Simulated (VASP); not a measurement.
# Normal strain, stress and strain energy of fcc Ag under biaxial (111) strain from −2 % to +2 %, PBEsol

We have to choose the misfit strain of a thin Ag(111) film that will serve as a stress standard for a wafer-curvature gauge. The film is 3 nm thick and coherent with its substrate. We set three conditions. The in-plane stress must be at least 2 GPa in magnitude. A single small-strain modulus must reproduce that stress to within 15 %, because the gauge software knows only one modulus. The stored energy must stay below 5 meV/atom, to limit the drive towards relaxation by dislocations.

The calculations give the normal strain, the in-plane stress and the strain energy of bulk silver at nine imposed strains, with the normal stress brought to zero. Strains and energies are measured from the relaxed PBEsol crystal, and tension is positive.

## Calculations

The start is an entry of the ASE's table of reference states database. The crystal was relaxed with PBEsol. Equal strain is imposed in the (111) plane; the strain along the normal is adjusted until the normal stress vanishes, and the atoms are relaxed with PBEsol. VASP 6.6.1, plane waves with PAW, cutoff 450 eV, no spin polarisation, no spin-orbit coupling, k mesh 25×25×25, static lattice. The same in all rows: band gap on the k mesh at PBEsol: 0.000 eV.

Notes on method and selection:

- Runs that did not converge, have known faults or may not be shown are not listed, and runs on Ansatz's PAW sets soft_1 and soft_2 are kept to separate tables.

Columns:

- strain (%): strain in the plane (tension positive).
- normal strain (%): strain along the normal.
- stress (GPa): in-plane stress, tension positive.
- strain energy (meV/atom): energy per atom above the relaxed crystal.

## Data

| member | strain (%) | normal strain (%) | stress (GPa) | strain energy (meV/atom) |
| --- | --- | --- | --- | --- |
| −2 % | −2.0 | 1.970 | −4.23 | 7.89 |
| −1.5 % | −1.5 | 1.525 | −2.94 | 4.21 |
| −1 % | −1.0 | 1.047 | −1.82 | 1.79 |
| −0.5 % | −0.5 | 0.533 | −0.85 | 0.44 |
| 0 % | 0.0 | 0.000 | 0.01 | 0.00 |
| +0.5 % | 0.5 | −0.547 | 0.78 | 0.41 |
| +1 % | 1.0 | −1.080 | 1.50 | 1.58 |
| +1.5 % | 1.5 | −1.592 | 2.20 | 3.49 |
| +2 % | 2.0 | −2.063 | 2.90 | 6.08 |

normal strain (%) against strain (%):

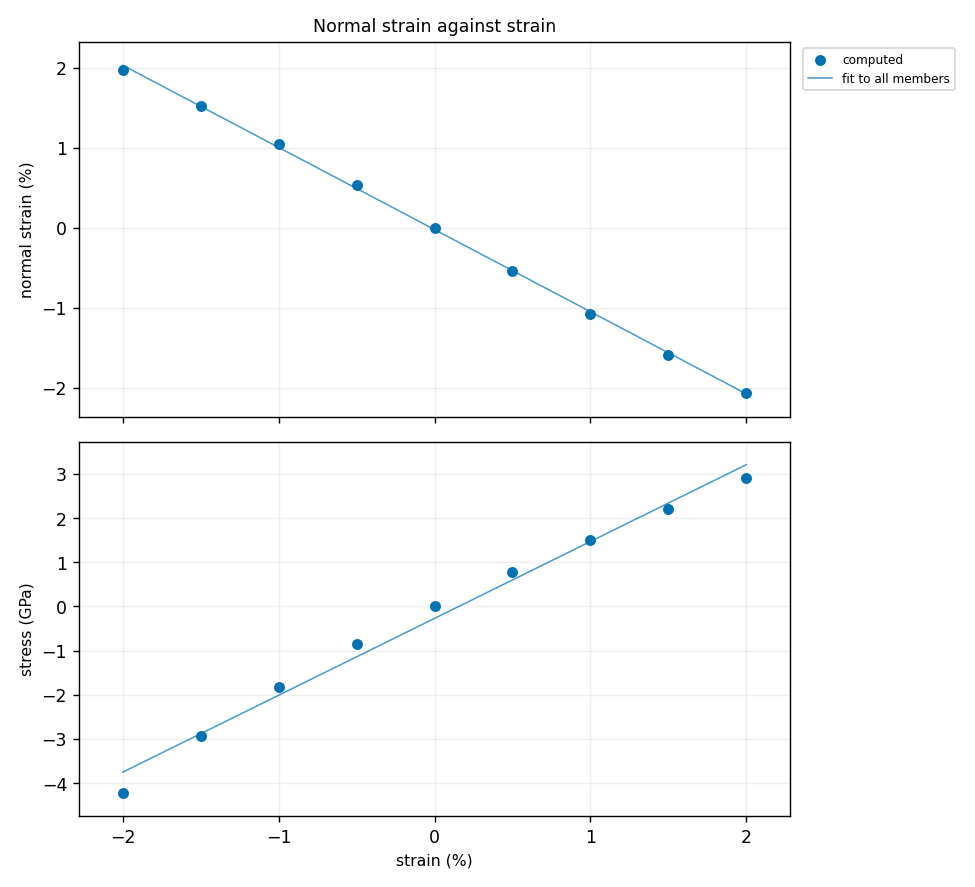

Least-squares fits to the whole series, with x = strain (%); R² and errors in the fitted variable (y, or ln y where the fit is in ln y):

| y | members | fit | R² | rms residual | leave-one-out rms | the same for the mean of the others |
| --- | --- | --- | --- | --- | --- | --- |
| normal strain (%) | 9 | y = −0.02300 − 1.027 x | 1.00 | 0.033 | 0.046 | 1.5 |
| stress (GPa) | 9 | y = −0.2722 + 1.740 x | 0.99 | 0.25 | 0.36 | 2.5 |

## Why the values move as they do

Differences between the ±0.5 % rows give the small-strain response. The biaxial modulus is $M$ = (0.78 + 0.85) / 0.010 = 163 GPa, and the normal strain is −(0.547 + 0.533) / 1.0 = −1.08 times the in-plane strain. Constant volume would require −2. Silver falls well short of that because keeping its volume would cost too much shear.

Two cubic moduli follow, with $r$ = −1.08 the strain ratio. The mean stress divided by the volume change gives $B$, and the difference between in-plane and normal stress divided by twice the difference of the two strains gives $C_{44}$:

$$B = \frac{2M}{3(2+r)}, \qquad C_{44} = \frac{M}{2(1-r)}$$

With 2 + $r$ written out as 2 − 1.08 = 0.92, they are $B$ = 2 × 163 / (3 × 0.92) = 118 GPa and $C_{44}$ = 163 / (2 × 2.08) = 39 GPa. $C_{11}$ and $C_{12}$ do not follow separately, since this strain involves only their combination $C_{11}+2C_{12} = 3B$.

In linear elasticity the energy density is $M\varepsilon^2$. The mean energy at ±0.5 % is (0.44 + 0.41) / 2 = 0.425 meV/atom, which gives 0.425 / 0.25 = 1.70 meV/atom per (%)². With a rough atomic volume of 17 Å³ this corresponds to about 160 GPa, in agreement with the stress.

Compression is stiffer than tension. Between −2 % and −1.5 % the stress changes by 1.29 GPa, between +1.5 % and +2 % by only 0.70 GPa. Six of the twelve nearest-neighbour bonds lie in the plane and take the full imposed strain, and the repulsion between atoms steepens as these bonds shorten. The stress, in GPa with $x$ in %, is described by

$$\sigma = 1.62x - 0.17x^2 + 0.04x^3$$

The coefficients follow from the rows at ±0.5 % and ±2 %, with the small-strain modulus written as 1.63 GPa per %. They are (2.90 − 4.23) / 8 = −0.17 for $x^2$, ((2.90 + 4.23) / 4 − 1.63) / (4 − 0.25) = 0.04 for $x^3$ and 1.63 − 0.04 × 0.25 = 1.62 for $x$. The curve misses no row by more than 0.02 GPa, whereas the straight line has an rms residual of 0.25 GPa.

## Exceptions

Largest departures from the fit to the whole series:

| member | normal strain (%) | fit | computed − fit | in rms residuals |
| --- | --- | --- | --- | --- |
| −2 % | 1.970 | 2.031 | −0.061 | 1.8 |
| −1 % | 1.047 | 1.004 | +0.043 | 1.3 |
| −0.5 % | 0.533 | 0.490 | +0.043 | 1.3 |
| +1 % | −1.080 | −1.050 | −0.030 | 0.9 |

No row leaves the smooth curves. The −2 % row lies 1.8 rms residuals from the straight line for the normal strain, but this is curvature: the normal response per step weakens towards both ends of the series. The 0.01 GPa left at zero strain is a numerical remainder, which cancels in differences between rows of opposite strain.

The derived $C_{44}$ deserves more caution. It lies below the value known from ultrasonic measurements on silver, while $B$ lies somewhat above. The two errors partly cancel in $M$, which we judge to be too low by roughly a tenth. Shear constants of noble metals are sensitive to how the Fermi surface is sampled, so mesh and smearing are possible causes beside the functional; the table has only one mesh.

## Meeting the brief

The stress condition leaves four rows: −2 %, −1.5 %, +1.5 % and +2 %. For each we compare the linear stress $M\varepsilon$, with $M$ = 163 GPa or 1.63 GPa per %, with the computed one.

- At −2 % the linear stress is 1.63 × 2.0 = 3.26 GPa in magnitude against 4.23 GPa, which is 23 % too small.
- At −1.5 % it is 1.63 × 1.5 = 2.45 GPa against 2.94 GPa, 17 % too small.
- At +1.5 % it is 2.45 against 2.20 GPa, 11 % too large.
- At +2 % it is 3.26 against 2.90 GPa, 12 % too large.

Both compressed rows fail the 15 % condition. Of the two stretched rows, +2 % stores 6.08 meV/atom and exceeds the energy limit, while +1.5 % stores 3.49 meV/atom and meets it. **We pick +1.5 %**, with +2 % as runner-up.

The gauge reads the film force per width, $F = \sigma t$, with $t$ = 3 nm. The pick gives 2.20 × 3 = 6.6 N/m and the runner-up 2.90 × 3 = 8.7 N/m.

We carry an error of roughly 10 % in the modulus, which scales stress and energy alike. If silver is stiffer than computed, as we expect, the pick has about 2.4 GPa and 3.8 meV/atom and still meets the brief. The −1 % row would then only just reach the stress limit, at 1.1 × 1.82 = 2.00 GPa; it would meet the other two conditions as well, but with no margin in stress. If silver were instead 10 % softer than computed, the stress of the pick would be 0.9 × 2.20 = 1.98 GPa, just short of the target. The runner-up would then still store 0.9 × 6.08 = 5.5 meV/atom, so no row would qualify. The comparison with the linear stress is a ratio and is unaffected by a common scale factor.

Raising the energy limit to 7 meV/atom would admit +2 %, and its larger force would then make it the better standard. The substrate should be matched to silver's measured lattice spacing plus 1.5 %, since the PBEsol spacing has an error of its own.

## Summary

One modulus of 163 GPa gives the computed stress to within 5 % at ±0.5 % strain and to about 10 % at ±1 %. At 2 % it is 12 % too high in tension and 23 % too low in compression.

Plastic flow is the largest omission. Bulk silver yields at roughly 0.1 GPa or less, so a film that loses coherence may keep only a small part of the computed stress. The free surface adds a tensile force of roughly 1 N/m, or about 0.3 GPa spread over 3 nm, which is as large as the departure from linearity at the chosen strain.
